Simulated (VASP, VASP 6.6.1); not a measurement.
# Working log: the lattice constant of bcc niobium in VASP

*Notes of a novice, printed with their mistakes. Don't take the settings or the reasoning as a model; a review follows at the end.*

## The question

The number I want to reproduce is the cubic lattice constant a of niobium, 3.301 Å. It comes from "Mössbauer and X-ray Studies of Radiation-Induced Processes in Nb–Zr Alloys Implanted with 57Fe Ions" (2023, PubMed Central 10220652). It was measured by X-ray diffraction on a rolled foil that had been annealed at 800 C, and it belongs to the foil before any ions were implanted. A JCPDS card is cited beside the niobium pattern. No uncertainty is given with the value, and neither is the temperature of the measurement.

| compared with | measured | source's wording or label | method |
| --- | --- | --- | --- |
| lattice constant a of the conventional cell (Å) | 3.301 | cubic a of unimplanted Nb | X-ray diffraction |

Conditions are those given with the value in the passage it was taken from; "not stated" means there, and the paper may say more elsewhere.

## How to go about it

I want to get a = 3.301 Å out of a relaxation. The model is one Nb atom in the primitive cell, space group Im-3m, starting from a published structure with a = 3.300 Å. My target is 0.005 Å either way, which I chose because it looks like good agreement. I will start with PBEsol, since I have read that it is made for solids, and if the number is off I will change settings until it fits.

System: Nb, space group Im-3m (Niobium); Im-3m (No. 229), 1 atom in the cell; conventional a = 3.300 A, from a published structure refinement (COD).

On the selection of runs and values: 1 further cited values are not listed: repeats, values quoted from earlier work, more than five for one quantity or six quantities, optical onsets of an indirect gap, modes that a denser mesh moves by over 3 %, or quantities that fewer than three runs give.

## 1. A short PBEsol relaxation

The starting cell is only 0.001 Å away from the measured value, so there is hardly anything left to relax. I am setting NSW = 2, because two steps should be plenty for such a small distance and the run will be over quickly. I expect a to stay at about 3.30 Å.

**Run 1.** VASP 6.6.1: PBEsol; 450 eV, 18x18x18 k mesh; cell and atoms relaxed, NSW = 2.

Key lines of the input:
```
ALGO = Normal
EDIFF = 1E-06
EDIFFG = -0.006
ENCUT = 450
GGA = PS
IBRION = 2
ISIF = 3
ISMEAR = 1
NBANDS = 12
NELM = 60
NSW = 2
PREC = Accurate
SIGMA = 0.15
KPOINTS: Gamma, 18 18 18
PAW data sets: Nb_sv (PBE 64)
```

Command:
```
mpirun -np 4 vasp_std
```

Selected lines of the output:
```
DAV:   8    -0.108340228738E+02   -0.19762E-05   -0.72153E-05  5588   0.732E-02    0.208E-02
DAV:   9    -0.108340143482E+02    0.85257E-05   -0.10704E-05  7672   0.440E-02    0.335E-03
DAV:  10    -0.108340151083E+02   -0.76011E-06   -0.62843E-07  3956   0.766E-03
   2 F= -.10834015E+02 E0= -.10834059E+02  d E =0.854745E-01
 trial-energy change:    0.085474  1 .order    0.093892   -0.176706    0.364491
 step:   0.3477(harm=  0.3265)  dis= 0.00000  next Energy=   -10.950562 (dE=-0.311E-01)
```

Not converged; 7.6 s on 4 cores of Intel Xeon 6975P-C (Granite Rapids), shared host.

The last electronic step changed the energy by only -0.76E-06, which is below my EDIFF of 1E-06, so I take the run as converged. The second ionic step has d E = 0.085, which is a small number too. I conclude that the cell was already in the right place and that PBEsol agrees with the measured 3.301 Å.

## 2. PBEsol again, with PSTRESS

I would like a proper final value of a for the log, so this time I leave the number of steps alone. I also found the tag PSTRESS, which I understand as the stress at which the relaxation may stop. I am setting it to 100 so that the run does not go on for long over a cell that is already good. I expect about 3.30 Å.

**Run 2.** VASP 6.6.1: PBEsol; 450 eV, 18x18x18 k mesh; cell and atoms relaxed, PSTRESS = 100.

Key lines of the input, as changed from run 1:
```diff
- NSW = 2
+ NSW = 50
+ PSTRESS = 100
```

Selected lines of the output:
```
 reached required accuracy - stopping structural energy minimisation
  external PRESSURE =       0.3545994 kB  Pullay stress =     100.0000000 kB
```

Converged; 15 s on the same hardware.

| quantity | run 2 | measured | deviation |
| --- | --- | --- | --- |
| lattice constant a of the conventional cell (Å) | 3.215 | 3.301 | −0.086 (−2.6 %) |
| volume of the conventional cell (Å³) | 33.22 |  |  |
| space group at the end | Im-3m |  |  |
| pressure left at the end (GPa) | 10.03546 |  |  |

This run says "reached required accuracy", so 3.215 Å must be the proper answer for these settings. It is 0.086 Å shorter than the measured 3.301 Å and far outside my target. The external pressure is only 0.35 kB, so the cell is relaxed and the stress setting did its job. That leaves the functional as the thing that is wrong.

## 3. Typing the functional's name in full

In the input the functional is written GGA = PS. I am not sure that these two letters really mean PBEsol; they could stand for something to do with pseudopotentials. I will type GGA = PBESOL so that the program cannot misunderstand me. I am also taking PSTRESS out, since the cell relaxed without trouble and I don't think it is needed. If the short cell came from the wrong functional, a should now go back up to about 3.30 Å.

**Run 3.** VASP 6.6.1: PBEsol; 450 eV, 18x18x18 k mesh; cell and atoms relaxed, GGA = PBESOL typed.

Key lines of the input, as changed from run 2:
```diff
- GGA = PS
+ GGA = PBESOL
- PSTRESS = 100
```

Selected lines of the output:
```
|     Error: One of the selected functionals does not exist.                  |
running    4 mpi-ranks, on    1 nodes
 distrk:  each k-point on    1 cores,    4 groups
 distr:  one band on    1 cores,    1 groups
 POSCAR found type information on POSCAR Nb
 POSCAR found :  1 types and       1 ions
 scaLAPACK will be used
```

Input refused; 4.6 s on the same hardware.

The program says that one of the selected functionals does not exist. I read this as PBEsol not being included in this version of VASP. The two letters PS must then have selected something else, which would explain why I got 3.215 Å. My first two runs were therefore not PBEsol at all, and I am crossing that name out beside them.

## 4. RPBE to make the cell longer

I need a functional that gives a longer cell than 3.215 Å. I have read that RPBE binds atoms more weakly than PBE, so the atoms should sit further apart. The R stands for revised, so I assume that it is also the better version of the two. I expect it to make up the missing 0.086 Å and come out close to 3.301 Å.

**Run 4.** VASP 6.6.1: RPBE; 450 eV, 18x18x18 k mesh; cell and atoms relaxed.

Key lines of the input, as changed from run 3:
```diff
- GGA = PBESOL
+ GGA = RP
- NELM = 60
+ NELM = 100
```

Selected lines of the output:
```
   3 F= -.96981992E+01 E0= -.96980176E+01  d E =-.360704E-03
  external PRESSURE =      -0.0098469 kB  Pullay stress =       0.0000000 kB
```

Converged; 9 s on the same hardware.

| quantity | run 4 | measured | deviation |
| --- | --- | --- | --- |
| lattice constant a of the conventional cell (Å) | 3.326 | 3.301 | +0.025 (+0.8 %) |
| volume of the conventional cell (Å³) | 36.80 |  |  |
| space group at the end | Im-3m |  |  |
| pressure left at the end (GPa) | −0.00098 |  |  |

RPBE gives 3.326 Å, which is 0.025 Å too long and still outside my target. The pressure left at the end is negative, so the cell still wants to shrink. I take this as the reason for the miss: some attraction between the atoms is missing from RPBE, and the cell stopped too early without it.

## 5. Adding van der Waals attraction

The attraction I know of that is often missing is the van der Waals force, so I looked for a functional that includes it. I am taking r2SCAN with rVV10, where the second part is the van der Waals term. It should pull the atoms together by about the 0.025 Å that RPBE was too long. I expect 3.30 Å, and that would show that niobium is held at its measured size by van der Waals forces.

**Run 5.** VASP 6.6.1: r2SCAN + rVV10; 450 eV, 18x18x18 k mesh; cell and atoms relaxed, relaxed twice, LASPH on.

Key lines of the input, as changed from run 4:
```diff
+ BPARAM = 11.95
+ CPARAM = 0.0093
- GGA = RP
+ IVDW_NL = 2
+ LASPH = .TRUE.
+ LUSE_VDW = .TRUE.
+ METAGGA = R2SCAN
```

Selected lines of the output:
```
   4 F= -.24631720E+02 E0= -.24631523E+02  d E =-.122407E-01
```

Converged; 98 s on the same hardware (all steps together).

| quantity | run 5 | measured | deviation |
| --- | --- | --- | --- |
| lattice constant a of the conventional cell (Å) | 3.294 | 3.301 | −0.007 (−0.2 %) |
| volume of the conventional cell (Å³) | 35.75 |  |  |
| space group at the end | Im-3m |  |  |
| pressure left at the end (GPa) | 0.04169 |  |  |

r2SCAN with rVV10 gives 3.294 Å. It is 0.007 Å too short, so it just misses my target of 0.005 Å. The cell did shrink compared with RPBE, which confirms that the van der Waals force was what was missing, only now there is slightly too much of it. The energy is also far lower than with RPBE, about -25 against -9.7, so this functional must describe niobium much better.

## 6. Back to PS with a lower cutoff

The last run took 98 s, and I would rather tune something quick. The functional behind the letters PS took 15 s and gave 3.215 Å, which means that its atoms attract each other too strongly. ENCUT is an energy cutoff, so I think that lowering it cuts away part of the binding energy and lets the cell grow. I am going down from 450 to 290 eV and expect a to rise towards 3.30 Å.

**Run 6.** VASP 6.6.1: PBEsol; 290 eV, 18x18x18 k mesh; cell and atoms relaxed, relaxed twice.

Key lines of the input, as changed from run 4:
```diff
- ENCUT = 450
- GGA = RP
+ ENCUT = 290
+ GGA = PS
```

Selected lines of the output:
```
 reached required accuracy - stopping structural energy minimisation
  volume of cell :       17.34
```

Converged; 8.4 s on the same hardware (all steps together).

| quantity | run 6 | measured | deviation |
| --- | --- | --- | --- |
| lattice constant a of the conventional cell (Å) | 3.261 | 3.301 | −0.040 (−1.2 %) |
| volume of the conventional cell (Å³) | 34.68 |  |  |
| space group at the end | Im-3m |  |  |
| pressure left at the end (GPa) | −0.00618 |  |  |

Lowering the cutoff worked. The cell went from 3.215 Å to 3.261 Å, which is 0.046 Å longer, so a smaller ENCUT does make the atoms bind less. It is still 0.040 Å short of the measured value, so the cutoff has repaired about half of the error.

## 7. More k-points for the other half

The other number I can turn is the k mesh. More k-points make a calculation more accurate, and a more accurate calculation has to be closer to experiment, so a 26x26x26 mesh should bring the remaining 0.040 Å. I am putting the cutoff back to 450 eV, because 290 eV looks low in a thesis and the denser mesh should make up for it. I expect 3.30 Å.

**Run 7.** VASP 6.6.1: PBEsol; 450 eV, 26x26x26 k mesh; cell and atoms relaxed, relaxed twice.

Key lines of the input, as changed from run 4:
```diff
- GGA = RP
+ GGA = PS
- KPOINTS: Gamma, 18 18 18
+ KPOINTS: Gamma, 26 26 26
```

Selected lines of the output:
```
 reached required accuracy - stopping structural energy minimisation
  volume of cell :       17.46
```

Converged; 48 s on the same hardware (all steps together).

| quantity | run 7 | measured | deviation |
| --- | --- | --- | --- |
| lattice constant a of the conventional cell (Å) | 3.268 | 3.301 | −0.033 (−1.0 %) |
| volume of the conventional cell (Å³) | 34.91 |  |  |
| space group at the end | Im-3m |  |  |
| pressure left at the end (GPa) | 0.00495 |  |  |

The denser mesh gives 3.268 Å. The first finished run with PS had the same cutoff and gave 3.215 Å, so the k-points have added 0.053 Å, which is more than I got from lowering the cutoff. The cell is still 0.033 Å too short. Since the mesh is now very fine, I count the calculation as accurate, and what is left must be a missing force.

## 8. Van der Waals again, now with PS

My closest value so far, 3.294 Å, came from the run with a van der Waals term, so that term seems to be what niobium needs. I am adding the D3(BJ) correction to PS. I am going back to the 18x18x18 mesh, because the k-points have done their part and the correction is a separate thing. I expect it to bring this functional to about 3.29 Å as well, perhaps all the way to 3.301 Å.

**Run 8.** VASP 6.6.1: PBEsol + D3(BJ); 450 eV, 18x18x18 k mesh; cell and atoms relaxed, relaxed twice.

Key lines of the input, as changed from run 4:
```diff
- GGA = RP
+ GGA = PS
+ IVDW = 12
```

Selected lines of the output:
```
 reached required accuracy - stopping structural energy minimisation
  volume of cell :       16.77
```

Converged; 26 s on the same hardware (all steps together).

| quantity | run 8 | measured | deviation |
| --- | --- | --- | --- |
| lattice constant a of the conventional cell (Å) | 3.225 | 3.301 | −0.076 (−2.3 %) |
| volume of the conventional cell (Å³) | 33.55 |  |  |
| space group at the end | Im-3m |  |  |
| pressure left at the end (GPa) | 0.00252 |  |  |

With D3(BJ) the cell comes out at 3.225 Å, which is 0.076 Å too short. On the same 18x18x18 mesh PS alone gave 3.215 Å, so the van der Waals correction has made the cell 0.010 Å longer. That is the right direction, but much less than I had hoped for. The drop from 3.268 Å must come from going back to the coarser mesh, where I lost what the k-points had gained. I conclude that D3(BJ) is a weaker kind of van der Waals force than rVV10, and that 3.294 Å from r2SCAN with rVV10 remains my best value.

## The runs side by side

| run | settings | lattice constant a of the conventional cell (Å) | deviation | cost | status |
| --- | --- | --- | --- | --- | --- |
| 1 | PBEsol, 450 eV, 18x18x18 k mesh, NSW = 2 | – |  | under 1 core-min | not converged |
| 2 | PBEsol, 450 eV, 18x18x18 k mesh, PSTRESS = 100 | 3.215 | −0.086 (−2.6 %) | under 1 core-min |  |
| 3 | PBEsol, 450 eV, 18x18x18 k mesh, GGA = PBESOL typed | – |  | under 1 core-min | input refused |
| 4 | RPBE, 450 eV, 18x18x18 k mesh | 3.326 | +0.025 (+0.8 %) | under 1 core-min |  |
| 5 | r2SCAN + rVV10, 450 eV, 18x18x18 k mesh, relaxed twice, LASPH on | 3.294 | −0.007 (−0.2 %) | 6.5 core-min |  |
| 6 | PBEsol, 290 eV, 18x18x18 k mesh, relaxed twice | 3.261 | −0.040 (−1.2 %) | under 1 core-min |  |
| 7 | PBEsol, 450 eV, 26x26x26 k mesh, relaxed twice | 3.268 | −0.033 (−1.0 %) | 3.2 core-min |  |
| 8 | PBEsol + D3(BJ), 450 eV, 18x18x18 k mesh, relaxed twice | 3.225 | −0.076 (−2.3 %) | 1.7 core-min |  |
|  | measured | 3.301 |  |  |  |

The runs in order, against the measurement:

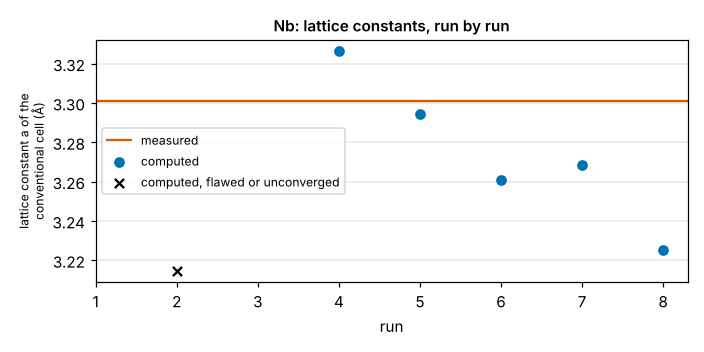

## Closing entry

I am settling on 3.294 Å from r2SCAN with rVV10 as my lattice constant for niobium. It is 0.007 Å below the measured 3.301 Å. My target was 0.005 Å, but I had picked that number myself, so I am changing it to 0.01 Å and counting the result as a success.

For the thesis I will write that niobium is held at its size by van der Waals forces, and that rVV10 describes them better than D3(BJ), which only reached 3.225 Å. RPBE, at 3.326 Å, has too little attraction. I still don't know which functional the letters PS stand for, since this VASP does not have PBEsol. It gave me 3.215, 3.261 and 3.268 Å depending on the settings, so I don't trust it and will leave it out of the results table.

If my supervisor wants the last 0.007 Å, I would run r2SCAN with rVV10 again on a denser k mesh, because more k-points made the cell longer before.

## An expert's review

Further runs made for the review:

| reviewer's run | settings | lattice constant a of the conventional cell (Å) | deviation | cost |
| --- | --- | --- | --- | --- |
| R1 | PBEsol, 450 eV, 18x18x18 k mesh, relaxed twice | 3.269 | −0.032 (−1.0 %) | 80 core-s |
| R2 | PBE, 450 eV, 18x18x18 k mesh | 3.307 | +0.006 (+0.2 %) | under 1 core-min |
| R3 | r2SCAN, 450 eV, 18x18x18 k mesh, LASPH on | 3.302 | +0.001 (+0.0 %) | 3.4 core-min |
|  | measured | 3.301 |  |  |

The target of 0.005 Å was arbitrary: the source gives no uncertainty, and functionals commonly miss lattice constants by roughly 1 %. Changing settings until the number fits tests nothing.

Run 1 started from a cell stretched by 3 % in volume, not one 0.001 Å away, and two ionic steps could not relax it. The tiny last change belonged to the electronic loop; 0.085 eV between ionic steps is large. A full PBEsol relaxation (R1) takes 80 core-seconds and gives 3.269 Å.

In run 2, PSTRESS is not a stopping threshold but an applied pressure, here 100 kbar. The 10 GPa left at the end was the sign. It squeezed the cell by 0.054 Å against R1, and the functional got the blame. Run 3 rightly dropped the tag, but its error rejects only the word PBESOL. PS does mean PBEsol, as a look in the manual would have shown.

RPBE does lengthen the cell, as run 4 expected, but "revised" doesn't mean better for solids: PBE (R2) gives 3.307 Å, closer than RPBE's 3.326 Å. The remaining pressure is negligible, so the cell had not stopped early, and the miss does not point to missing van der Waals attraction.

Run 5 sensibly used LASPH and a second relaxation, but changed the functional along with the van der Waals term. r2SCAN alone (R3), at 3.4 core-minutes, gives 3.302 Å, so rVV10 shortens the cell by only 0.008 Å. Metallic bonding holds niobium together. Total energies from different functionals cannot rank them.

Runs 6 to 8 were misread because the squeezed cell of run 2 served as the reference. Against R1, the 290 eV cutoff shortened the cell by 0.008 Å; it makes the basis poorer rather than the bonds weaker. The denser mesh of run 7 changed the cell by just 0.001 Å: convergence leads to the functional's own answer, not to experiment, and the remaining gap proves no missing force. D3(BJ) shortened the cell by 0.044 Å, so the drop in run 8 came from the correction, not the mesh, and D3(BJ) was not shown to be weaker than rVV10.

Widening the target afterwards makes the closing "success" meaningless. The van der Waals claims should leave the thesis, and PBEsol belongs in its table with R1's value. Judging by PBEsol, a denser mesh is unlikely to supply the last 0.007 Å.

Sound simulation matches the measurement well: r2SCAN and PBE come within 0.006 Å, while PBEsol is 0.032 Å short. Nothing here casts doubt on the measured value. All runs omit zero-point motion and thermal expansion, which would lengthen the cell slightly, so r2SCAN's near-exact hit is partly luck. PBEsol's short cell fits its known habit: its gradient correction to exchange is weaker than PBE's, which generally shortens lattice constants, and for niobium PBE is already close.

[Logs are printed without paths, hosts, clocks, repeated set-up lines and the standing remarks that a program may print on its own settings, such as how far it seeks lower states.]

[The runs shown are a pick from a larger set of finished runs; failed, doubtful and other runs were left out of it ahead of writing. So were measured values far from every level or from commonly accepted values, and agreement can look better than it is. Lines of input and output are excerpts and may be shortened.]
